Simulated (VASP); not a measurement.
# Conduction-valley splitting of diamond under biaxial (001) strain at TB-mBJ

Electrons in a diamond device are shared among six equivalent valleys, each heavier along its own axis than across it. A strain that lowers some of these valleys therefore changes the effective mass along the current and the scattering between valleys. We need to know which valleys a strained (001) layer fills, and how far the others lie above them.

We calculated the band edges with TB-mBJ on LDA-relaxed cells, for in-plane strains from −2 % to +2 % with the normal stress relaxed to zero. Level energies are counted from the valence-band top at the zone centre. The splitting is the [100] valley less the [001] valley, so a positive value means that [001] is lower.

## Systems and settings

The start is a typed prototype cell. The crystal was relaxed with LDA. Equal strain is imposed in the (001) plane; the strain along the normal is adjusted until the normal stress vanishes, and the atoms are relaxed with LDA. VASP 6.6.1, plane waves with PAW, cutoff 600 eV, no spin polarisation. Band edges are single points at TB-mBJ (no spin-orbit coupling) on these cells, k mesh 11×11×11, read on short lines of k points at the zone centre and through the valleys; energies are counted from the valence-band top at the zone centre.  All levels use the PAW data sets made with LDA.

Notes on method and selection:

- A valley's energy from the valence-band top holds the shift of that top as well as the shift of the valley.
- The TB-mBJ parameter c is fixed anew from the density of each cell, so it changes along the series.
- Runs that did not converge, have known faults or may not be shown are not listed, and runs on Ansatz's PAW sets soft_1 and soft_2 are kept to separate tables.

Columns:

- strain (%): strain in the plane (tension positive).
- splitting (eV): valley along [100] less valley along [001].
- Δ [001] (eV): minimum of the conduction band along Γ–X in the [001] direction.
- Δ [100] (eV): minimum of the conduction band along Γ–X in the [100] direction.
- L [111] (eV): conduction level at L along [111].
- Γ level (eV): lowest conduction level at Γ.

## Numbers

| member | strain (%) | splitting (eV) | Δ [001] (eV) | Δ [100] (eV) | L [111] (eV) | Γ level (eV) |
| --- | --- | --- | --- | --- | --- | --- |
| −2 % | −2.0 | −0.632 | 5.328 | 4.697 | 9.158 | 6.545 |
| −1.5 % | −1.5 | −0.471 | 5.243 | 4.772 | 9.286 | 6.584 |
| −1 % | −1.0 | −0.313 | 5.159 | 4.846 | 9.409 | 6.623 |
| −0.5 % | −0.5 | −0.155 | 5.074 | 4.919 | 9.527 | 6.661 |
| 0 % | 0.0 | −0.001 | 4.991 | 4.990 | 9.623 | 6.698 |
| +0.5 % | 0.5 | 0.153 | 4.804 | 4.956 | 9.413 | 6.552 |
| +1 % | 1.0 | 0.303 | 4.620 | 4.922 | 9.158 | 6.408 |
| +1.5 % | 1.5 | 0.450 | 4.440 | 4.890 | 8.907 | 6.268 |
| +2 % | 2.0 | 0.596 | 4.263 | 4.859 | 8.660 | 6.131 |

splitting (eV) against strain (%):

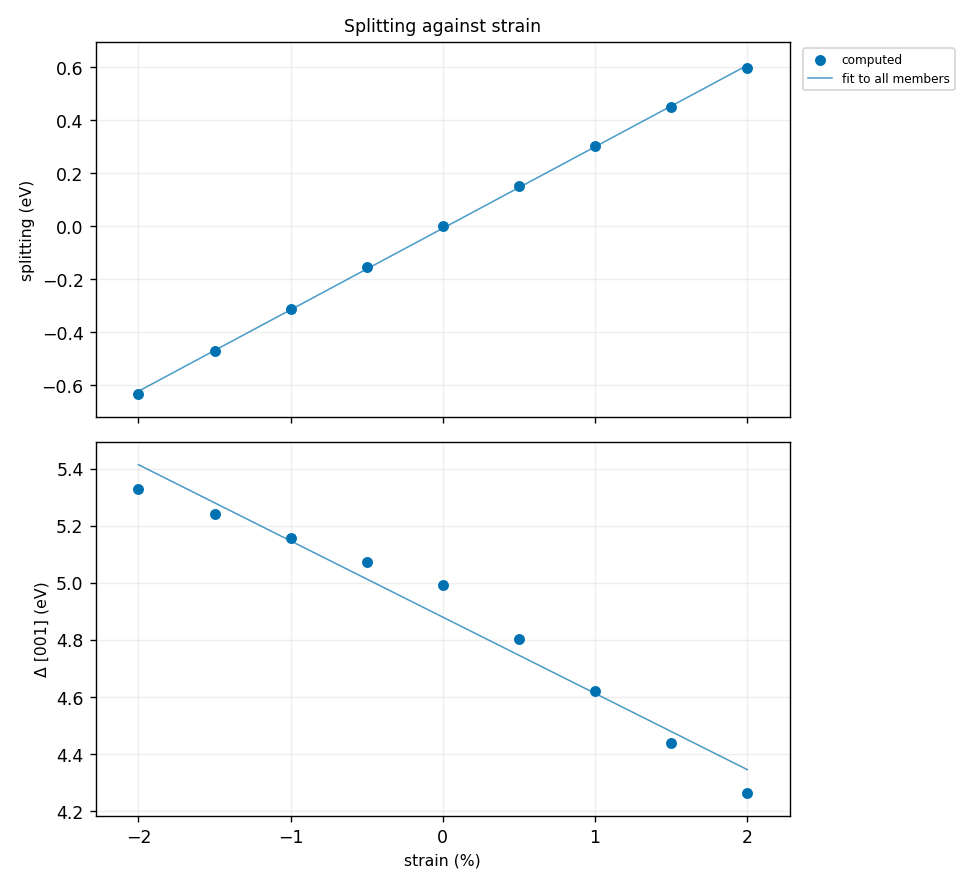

Least-squares fits to the whole series, with x = strain (%); R² and errors in the fitted variable (y, or ln y where the fit is in ln y):

| y | members | fit | R² | rms residual | leave-one-out rms | the same for the mean of the others |
| --- | --- | --- | --- | --- | --- | --- |
| splitting (eV) | 9 | y = −0.007778 + 0.3072 x | 1.00 | 0.0065 | 0.0093 | 0.45 |
| Δ [001] (eV) | 9 | y = 4.880 − 0.2672 x | 0.97 | 0.064 | 0.087 | 0.39 |

## Mechanism

Tension puts the two valleys along ±[001] lowest; compression puts the four in-plane valleys along ±[100] and ±[010] lowest. The splitting runs from −0.632 eV at −2 % to 0.596 eV at +2 %, with a fitted slope of 0.3072 eV per % of strain. The lowest level at Γ stays at least 6.698 − 4.990 = 1.708 eV above the lowest valley in every row, and L is higher still.

To first order the splitting is $\Xi_u(\varepsilon_\parallel-\varepsilon_\perp)$, where $\Xi_u$ is the shear deformation potential of the valley. Diamond contracts along the normal by roughly a quarter of the in-plane tension, so the strain difference is about 1 + 0.25 = 1.25 times the in-plane strain. With the slope taken per unit strain instead of per %, $\Xi_u$ is roughly 0.3072 × 100 / 1.25 = 24.6 eV.

The sign can be understood from the bonding. Near X along [001], the conduction state is an antibonding mixture of s on one atom and $p_z$ on its neighbours. In-plane tension tilts the bonds towards the plane, which weakens this coupling and lowers the state. The matching coupling for the [100] valley involves $p_x$. The tilt favours it, which offsets part of the weakening from longer bonds, so that valley rises relative to [001].

The separate valley energies also carry the shift of the valence top, which is a degenerate pair under compression and a single state under tension. This puts a kink at zero strain:

- The slope of the [001] valley changes from (4.991 − 5.074) / 0.5 = −0.166 to (4.804 − 4.991) / 0.5 = −0.374 eV per %.
- The slope of the [100] valley changes from (4.990 − 4.919) / 0.5 = 0.142 to (4.956 − 4.990) / 0.5 = −0.068 eV per %.

Both slopes drop by about 0.21 eV per %, which is the rate at which the valence single state and pair separate. The kink cancels in the splitting but not in the gap. The gap shrinks faster under tension, through the combined shifts of the valence top and of whichever valley is lowest. At +2 % the lowest valley is 4.990 − 4.263 = 0.727 eV below its unstrained energy, against 4.990 − 4.697 = 0.293 eV at −2 %.

## Exceptions

Largest departures from the fit to the whole series:

| member | splitting (eV) | fit | computed − fit | in rms residuals |
| --- | --- | --- | --- | --- |
| +2 % | 0.596 | 0.607 | −0.011 | 1.6 |
| −2 % | −0.632 | −0.622 | −0.010 | 1.5 |
| +0.5 % | 0.153 | 0.146 | +0.007 | 1.1 |
| 0 % | −0.001 | −0.008 | +0.007 | 1.0 |

The largest departures from the splitting line are −0.011 eV at +2 % and −0.010 eV at −2 %, while the rows near zero lie slightly above it. This pattern is a weak bend. The local slope falls from (0.632 − 0.471) / 0.5 = 0.322 eV per % at the compressed end to (0.596 − 0.450) / 0.5 = 0.292 at the stretched end. Longer bonds under tension weaken the orbital couplings, which acts in this direction; other second-order strain terms may contribute.

The straight line for the [001] valley energy fails more visibly. At zero strain it gives 4.880 eV against the computed 4.991 eV, because one line is drawn through the kink from the valence top.

The L level at zero strain also falls a few hundredths of an eV below the continuation of its neighbours on either side. A change in which of several close levels at L is lowest is a possible reason. It has no bearing on the valley order.

The −0.001 eV splitting at zero strain reflects the very small normal strain left in that cell and is not a real preference for [100].

## Applications

**What tension places the [001] valleys 0.20 eV below the in-plane ones?**

The rows at +0.5 % and +1 % bracket the target, with splittings of 0.153 and 0.303 eV. The local slope is (0.303 − 0.153) / 0.5 = 0.300 eV per %. The strain needed is 0.5 + (0.20 − 0.153) / 0.300 = 0.66 %. The fitted line gives (0.20 + 0.0078) / 0.3072 = 0.68 %, so about 0.7 % is a sound target.

**Is +0.5 % enough to empty the in-plane valleys at room temperature?**

The thermal energy is roughly 0.026 eV, and 0.153 / 0.026 = 5.9. The Boltzmann factor is exp(−5.9) = 0.0027. Four upper valleys face two lower ones, so the population ratio is 2 × 0.0027 = 0.005. In equilibrium about half a per cent of the electrons remain in the in-plane valleys. Hot electrons in a high field would populate them more.

**Can the shift of the [001] valley from the valence top stand in for the splitting?**

At +1 % that valley falls by 4.991 − 4.620 = 0.371 eV, while the splitting is 0.303 eV. At −1 % it rises by 5.159 − 4.991 = 0.168 eV, while the splitting has a size of 0.313 eV. The shift overstates the splitting in one case and gives about half of it in the other. The two valleys should be subtracted within the same cell.

## Closing remarks

Between −2 % and +2 %, the valley splitting of diamond is close to linear at about 0.31 eV per % of in-plane strain, and its sign decides which valleys fill. The gap needs a separate slope for each sign of strain.

TB-mBJ puts the unstrained gap at 4.990 eV, below the measured gap of diamond. Lattice vibrations, including zero-point motion, are left out and would lower the calculated gap further. Spin-orbit coupling would raise the valence top very slightly, lowering all tabled levels by the same small amount in a given cell and leaving the splitting almost unchanged.

The TB-mBJ parameter $c$ changes from cell to cell, which can affect the gap slopes. Its effect on the splitting should be smaller, since both valleys are taken from one cell with one value of $c$.
